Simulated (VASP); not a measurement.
# SCF wall time of two-atom Tl (P6_3/mmc) in r2SCAN against electronic solver and density mixing

We calculate the r2SCAN ground state of Tl (P6_3/mmc) at fixed atomic positions, changing only the electronic solver or the density mixing, and measure the wall time of one complete SCF run. The question is how far that time depends on these settings. It matters to a materials group because a screening study repeats such runs many times, and a poor setting is paid for in each of them. Times are in seconds per run on two MPI ranks. Energy errors are per atom and are taken from the run with ALGO = Normal, so they measure agreement between solvers and not accuracy against experiment.

## Calculations

A cell from a diffraction database. VASP 6.6.1, plane waves with PAW, r2SCAN, 2 atoms at fixed positions, no spin polarisation, no spin-orbit coupling. Held fixed: cutoff 400 eV, k mesh 7×7×4, ISMEAR = -1, SIGMA = 0.05 eV and 2 MPI ranks. Each row is named by the tags or value that set it apart; differences are taken from the run 'ALGO = Normal'. All ran on Intel(R) Xeon(R) 6975P-C (Granite Rapids), shared with other work, so times are rough.

Notes on method and selection:

- Runs that did not converge, have known faults or may not be shown are not listed, and runs on Ansatz's PAW sets soft_1 and soft_2 are kept to separate tables.

Columns:

- energy error (meV/atom): energy per atom extrapolated to zero smearing, less that of the reference (ALGO = Normal).
- cycles: SCF cycles.

Input lines of one member:

```
PREC = Accurate
ENCUT = 400
EDIFF = 1E-06
NELM = 100
ISMEAR = -1
SIGMA = 0.05
LREAL = .FALSE.
ALGO = Normal
METAGGA = R2SCAN
LASPH = .TRUE.
NBANDS = 19
LORBIT = 11
KPAR = 2
ISIF = 2
```

Command (options for logging and memory left out): `mpirun -np 2 vasp_std`

## Results

```
member                   energy error (meV/atom)  cycles  wall time (s)
IMIX = 1, AMIX = 0.2     0.002                    30      24.0
ALGO = VeryFast          0.000                    21      19.4
ALGO = Damped            0.000                    20      16.6
AMIX = 0.8               0.000                    13      11.2
ALGO = Normal            0.000                    13      11.4
ALGO = All               0.000                    14      16.4
AMIX = 0.1, BMIX = 0.01  0.000                    14      ?
ALGO = Fast              0.000                    14      14.0
```

Cells marked ? are withheld until the estimate has been made.

## Reading the trend

The clearest effect comes from the mixing scheme. With IMIX = 1 and AMIX = 0.2 the run takes 24.0 s, against 11.4 s for ALGO = Normal, a ratio of 24.0 / 11.4 = 2.1. The cycle count rises by 30 / 13 = 2.3, so the extra time comes from more cycles and not from dearer ones.

The reason lies in how the next density is built. IMIX = 1 is simple Kerker mixing: each step adds a damped fraction of the difference between output and input density and keeps no memory of earlier steps. The default scheme uses the history of those differences to correct its step, and therefore depends much less on the starting fraction. AMIX = 0.8 accordingly needs 13 cycles, as the default does. The small cell helps too, because it has no long-wavelength density components, which are the ones that make charge slosh in large metallic cells.

The solvers differ less. ALGO = Fast and ALGO = All each need 14 cycles, ALGO = Damped 20 and ALGO = VeryFast 21. Their times lie between 14.0 and 19.4 s, all less than twice that of ALGO = Normal, which on shared hosts is too little for a firm ranking. A cycle also means different work in different solvers: ALGO = All, for instance, makes line searches along its conjugate-gradient directions, which may explain its 16.4 s for 14 cycles.

The choice hardly touches the energy. The largest error is 0.002 meV/atom, for IMIX = 1. A slowly converging run can meet the stopping test on the last energy change while a slightly larger error remains, which would account for it.

Since unconverged runs are not listed, these times say nothing about how reliably a setting converges. For larger cells or slabs of a metal, mixing can matter much more than it does here.

## A prediction

Plain estimates from the members shown:

- AMIX = 0.1, BMIX = 0.01, mean of the 7 members shown: 16.1 s, standard deviation 4.2

The withheld run, AMIX = 0.1 with BMIX = 0.01, keeps the solver of ALGO = Normal and changes only the mixing. Mixing the density costs little beside updating the orbitals, so the time should follow the number of cycles, which the table gives as 14. The mean of the seven shown members, 16.1 s, ignores this count and includes other solvers as well as the slow 30-cycle run, so we do not use it.

We take the time per cycle from the two 13-cycle runs with the same solver, ALGO = Normal and AMIX = 0.8. Their mean time is (11.4 + 11.2) / 2 = 11.3 s, which gives 11.3 / 13 = 0.869 s per cycle. For 14 cycles the estimate is 0.869 × 14 = 12.2 s.

The same route can be tried on IMIX = 1, the remaining run with this solver. It gives 0.869 × 30 = 26.1 s against the tabulated 24.0 s, a miss of 2.1 s or 9 %. Part of this may be start-up time, which does not grow with the cycle count, and part the load on the shared host. Applied to the present estimate, 9 % is 0.09 × 12.2 = 1.1 s, which we take as one standard deviation, though it rests on a single trial.

**Committed estimate, AMIX = 0.1, BMIX = 0.01: wall time = 12.2 ± 1.1 s.**

## The withheld result

```
member                   energy error (meV/atom)  cycles  wall time (s)
AMIX = 0.1, BMIX = 0.01  0.000                    14      12.2
```

```
member                   estimate   wall time (s)  computed  estimate − computed  miss in error bars
AMIX = 0.1, BMIX = 0.01  committed  12.2           12.2      0.0                  0.0
AMIX = 0.1, BMIX = 0.01  mean       16.1           12.2      +3.9
```

wall time (s) by member:

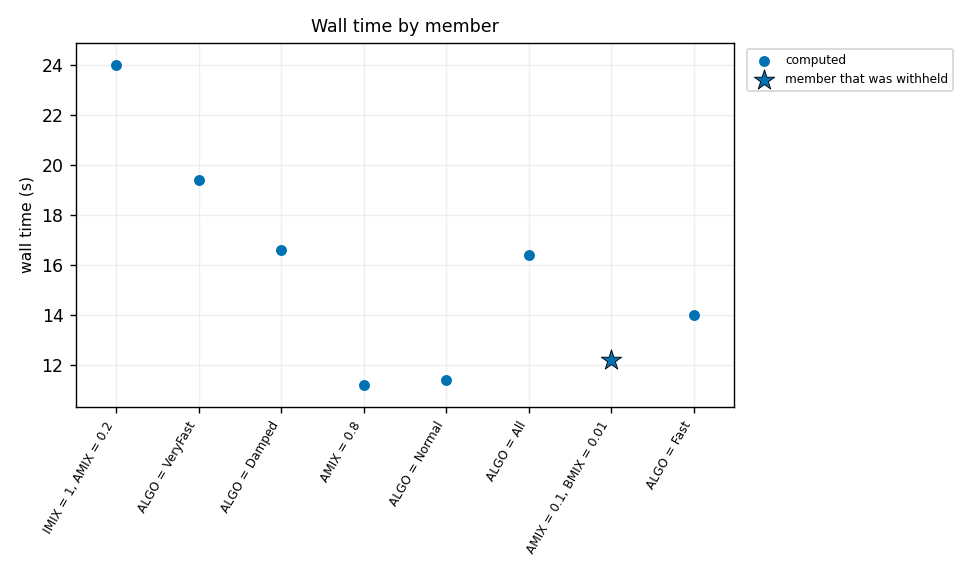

The estimate of 12.2 s agrees with the measured 12.2 s and lies well inside its error bar of 1.1 s. The mean of the other seven members, 16.1 s, is 3.9 s too high. Agreement this close is partly chance, since times on a shared host are rough.

The argument that held is that changing the mixing leaves the cost of a cycle nearly unchanged: 12.2 / 14 = 0.87 s here, against 11.4 / 13 = 0.88 s for ALGO = Normal. The cycle count was known beforehand, so the result does not test whether we could have predicted it. That count does show that lowering both AMIX and BMIX costs only one cycle more than the default, as expected of a mixer that corrects its steps from their history.

## Exceptions

IMIX = 1 with AMIX = 0.2 stands farthest out, at 24.0 − 11.4 = 12.6 s above ALGO = Normal. Its 30 cycles account for this, since a single cycle, at 24.0 / 30 = 0.80 s, costs no more than with the default mixing.

ALGO = VeryFast comes next, with 21 − 13 = 8 cycles more than ALGO = Normal. The likeliest reason is its start. From random orbitals, VASP by default runs about twelve opening cycles at fixed density for this solver, against about five for ALGO = Normal, which covers most of the difference.

The run with AMIX = 0.1 and BMIX = 0.01 is ordinary in time and energy, but its pressure, which was also computed though not tabulated here, shifts most. Near self-consistency the energy error is of second order in the remaining density error, whereas the stress error is of first order. Weak mixing can therefore meet the energy test while the density is still slightly off.

## Rules of thumb and their limits

For this cell and these settings, 0.87 s times the number of cycles gives the wall time with a root-mean-square miss of about 1.9 s over all eight runs, against a scatter of roughly 4.1 s about their mean. The largest miss is for ALGO = All, whose cycles cost more. The rule needs a known cycle count.

In practice, a thousand such runs one after another would take 1000 × 11.4 / 3600 = 3.2 h with ALGO = Normal and 1000 × 24.0 / 3600 = 6.7 h with IMIX = 1. Where the pressure matters, EDIFF should be tightened, whichever mixing is used.

Spin-orbit coupling, left out here, is strong in Tl. It would lengthen a run considerably, because the orbitals become two-component spinors, and would lower the energy by far more than the 0.002 meV/atom that separates these runs.

[Logs are printed without paths, hosts, clocks, repeated set-up lines and the standing remarks that a program may print on its own settings, such as how far it seeks lower states.]
